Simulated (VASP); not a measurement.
# HF, HCl and H₂O on rock-salt LiF(001): binding energy and level shifts with PBE-D3(BJ), binding checked with r2SCAN+rVV10

By the usual rule of thumb, the shorter the hydrogen bond to a surface anion, the stronger the binding. The series tests this rule for a practical target: a thin LiF film on a metal contact, held at 150 K, that signals an adsorbed gas through its surface potential. The brief asks for a potential step of at least 1 V at one molecule per 2×2 cell, and for a mean stay of at least 1 s. Water, the common background gas, should give less than 0.1 V.

Binding is measured against the clean slab and the free molecule, and a negative energy means that the molecule is held. The potential step is measured against the clean face and is positive when the outer vacuum level rises relative to the slab.

## Method

VASP 6.6.1 with its PAW datasets (PBE 64), a cutoff of 500 eV, PBE-D3(BJ). The surface is rock-salt LiF(001), 2×2, four layers; each state is built by hand and relaxed (threshold 0.04 eV/Å, under 0.08 where a run ended short) with a dipole correction, Gaussian smearing of 0.05 eV and meshes of 2 points along each in-plane vector; gases are relaxed alone in a box. r2SCAN+rVV10 is a single point on those geometries. The slabs are spin-paired, no spin-orbit coupling. The energy is the adsorption energy against the free molecule, negative when downhill; energies are static. Aspherical gradient terms inside the PAW spheres (LASPH) are on.

Notes on method and selection:

- One start for each state; other arrangements may lie lower.
- Zero-point and thermal terms are left out; they favour steps that give off gas.
- Members whose relaxation ended with forces over 0.08 eV/Å, or whose line-up differs by over 0.25 eV between elements, are not listed.
- Runs in which the search for lower states was switched off are not listed.
- 'Whole' and 'split' name the start; the nearest pair and its distance show how each state ended, and some split starts joined again.
- Runs that did not converge, have known faults or may not be shown are not listed, and runs on Ansatz's PAW sets soft_1 and soft_2 are kept to separate tables.

Columns:

- distance (Å): its distance.
- gap (eV): gap of the slab on the mesh, 0 where none.
- from: state from which the energy counts, with gases taken up (+) or given off (−).
- pair: nearest pair, adsorbate-surface.
- E PBE-D3(BJ) (eV): energy per step, one molecule a cell, PBE-D3(BJ).
- E r2SCAN+rVV10 (eV): energy per step, one molecule a cell, r2SCAN+rVV10.
- level (eV): vacuum level above the upper face less the Fermi level, or the highest filled level where there is a gap.

## Computed values

| member | distance (Å) | gap (eV) | from | pair | E PBE-D3(BJ) (eV) | E r2SCAN+rVV10 (eV) | level (eV) |
| --- | --- | --- | --- | --- | --- | --- | --- |
| clean | – | 6.97 | – | – | – | – | 7.84 |
| HCl, split | 1.67 | 6.08 | clean (+1 HCl) | H-F | −0.343 | −0.306 | 8.21 |
| HCl, whole | 1.71 | 6.11 | clean (+1 HCl) | H-F | −0.344 | −0.303 | 8.21 |
| H2O, split | 1.86 | 6.47 | clean (+1 H2O) | H-F | −0.380 | −0.386 | 7.37 |
| H2O, whole | 1.87 | 6.50 | clean (+1 H2O) | H-F | −0.401 | −0.416 | 7.40 |
| HF, whole | 1.50 | 6.93 | clean (+1 HF) | H-F | −0.458 | −0.485 | 9.09 |
| HF, split | 1.48 | 6.96 | clean (+1 HF) | H-F | −0.458 | −0.507 | 9.12 |

E PBE-D3(BJ) (eV) by member:

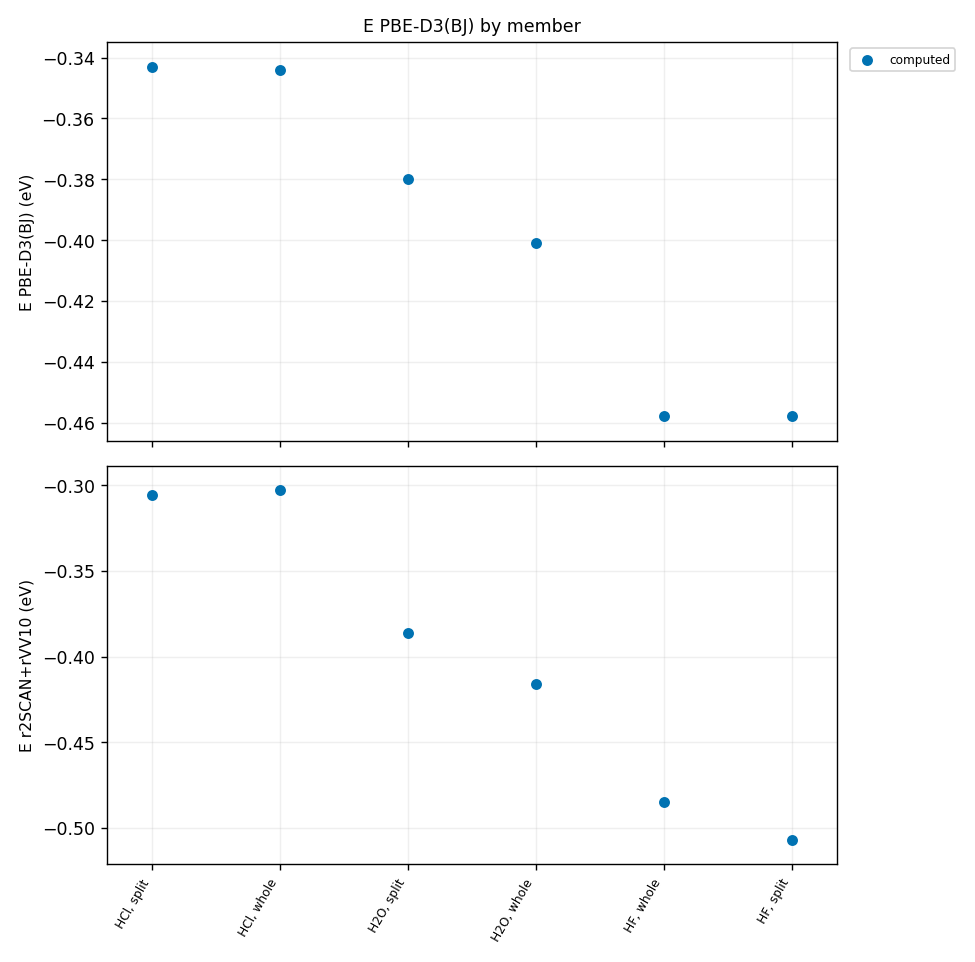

## What drives the series

The rule fails for one of the three pairs of molecules. HF has the shortest contact and the strongest binding (1.50 Å, −0.458 eV for the whole start). HCl, however, sits closer than water, 1.71 against 1.87 Å, and is held less strongly, by 0.401 − 0.344 = 0.057 eV. r2SCAN+rVV10 keeps this order and widens the difference to 0.416 − 0.303 = 0.113 eV. A likely reason is that water has a second hold, its oxygen lying near a surface Li ion, which the H-F distance does not register.

The level column mixes two effects. One is the potential step of the molecular layer,

$$\Delta\phi = \frac{e\mu_\perp}{\varepsilon_0 A},$$

where $\mu_\perp$ is the dipole along the surface normal, counted positive when its positive end points into the surface, and $A$ is the cell area. The other is a change in which state is the highest filled one. If the lowest empty level belongs to the slab, the step is the change in (level − gap), which is 7.84 − 6.97 = 0.87 eV for the clean face. For the whole starts:

- HF: 9.09 − 6.93 − 0.87 = 1.29 eV
- HCl: 8.21 − 6.11 − 0.87 = 1.23 eV
- H₂O: 7.40 − 6.50 − 0.87 = 0.03 eV

HF and HCl point their hydrogen at the surface and their halogen outward, which raises the vacuum level. Water's small step fits a molecule lying nearly flat, as the proposed contact with Li would require.

The gap shows the second effect. It hardly changes under HF, but narrows by 6.97 − 6.11 = 0.86 eV under HCl and by 6.97 − 6.50 = 0.47 eV under water. This fits a lone-pair level of the molecule lying above the fluorine 2p band of the slab. The depth of the highest filled level therefore grows by 9.09 − 7.84 = 1.25 eV with HF and by only 8.21 − 7.84 = 0.37 eV with HCl, and shrinks by 7.84 − 7.40 = 0.44 eV with water.

## Exceptions

The rows named "split" contain no split molecule. Hydrogen bound to a surface fluoride would sit at roughly 0.9 Å, whereas the shortest contact in the table is 1.48 Å. All three split starts rejoined, so the energy of a truly split state remains unknown. Their return shows only that these particular starts were not stable.

The paired rows also indicate how far the binding depends on the start. With PBE-D3(BJ) the two HCl rows differ by 0.001 eV and the two HF rows agree, while the water rows differ by 0.021 eV. Water may have more than one shallow resting place, or a relaxation may have stopped slightly early on a flat energy surface. With r2SCAN+rVV10 the HF rows also differ, by 0.507 − 0.485 = 0.022 eV, so differences of this size should not be read as trends.

HCl gives nearly the same step as HF although its free dipole is clearly smaller. A more tilted HF, or a more strongly polarised HCl, would account for this.

## Choosing a member

The potential step in volts is $\Delta\phi/e$, so the values in eV carry over directly: 1.29 V for HF, 1.23 V for HCl and 0.03 V for water. Both acids meet the 1 V target, and water stays below its limit of 0.1 V. The result for water is the least secure: it assumes that the lowest empty level stays fixed to the slab, and a shift of that level by only 0.1 eV would matter as much as the limit itself.

The mean stay follows from

$$\tau = \tau_0\exp\left(\frac{|E|}{k_BT}\right),$$

with $\tau_0 = 10^{-13}$ s as an assumed attempt time and $k_B = 8.6\times10^{-5}$ eV/K. At 150 K, $k_BT$ is 0.013 eV, and a stay of 1 s needs a binding of 0.013 × 30 = 0.39 eV, where 30 is the natural logarithm of $\tau/\tau_0$.

- HF, at 0.458 eV, exceeds this by 0.07 eV and stays for roughly 200 s.
- HCl, at 0.344 eV, falls short by 0.05 eV and stays for roughly 0.04 s.

The pick is HF, with HCl as runner-up. At equal gas pressures HF should also displace water one for one, with a gain of 0.458 − 0.401 = 0.057 eV, whereas HCl would have to pay the same amount.

PBE-D3(BJ) tends to bind hydrogen-bonded molecules somewhat too strongly, by a rough 0.05 eV. Taking that from HF leaves 0.458 − 0.05 = 0.41 eV, still enough. r2SCAN+rVV10 gives HF 0.485 eV and HCl 0.303 eV, so it supports the same choice.

The margin is nevertheless thin. Zero-point motion would probably weaken the binding by some hundredths of an eV. An attempt time of $10^{-15}$ s, plausible for a molecule that turns freely as it leaves, would raise the required binding by 0.013 × 4.6 = 0.06 eV, where 4.6 is the natural logarithm of the hundredfold change in $\tau_0$. Together these could make HF fail at 150 K, and the film would then have to be colder.

Cooling also helps the runner-up. At 120 K the requirement drops to about 0.31 eV, which HCl meets with PBE-D3(BJ) and just misses with r2SCAN+rVV10.

## Conclusions and limits

For these three molecules at one per 2×2 cell, both levels of theory give the binding order HF, H₂O, HCl, and contact length alone does not reproduce it. The potential step does not follow the strength of binding: water is held more strongly than HCl but gives almost no step. The orientation of the molecule is the likely reason.

Two errors are larger than the differences discussed here, but partly cancel between the molecules. The entropy lost by the gas disfavours adsorption by a rough 0.2 eV at 150 K and ordinary pressure, against a binding spread of 0.458 − 0.343 = 0.115 eV; much of this loss is common to all three gases. Self-interaction error in PBE leaves filled levels too shallow and gaps too narrow by several eV, so shifts between levels of like character are more reliable than absolute levels. The narrowing of the gap under HCl and water compares a molecular level with a slab band and is less certain. The mesh also misses the zone centre, so the listed gaps and levels are not those of the true band edges.
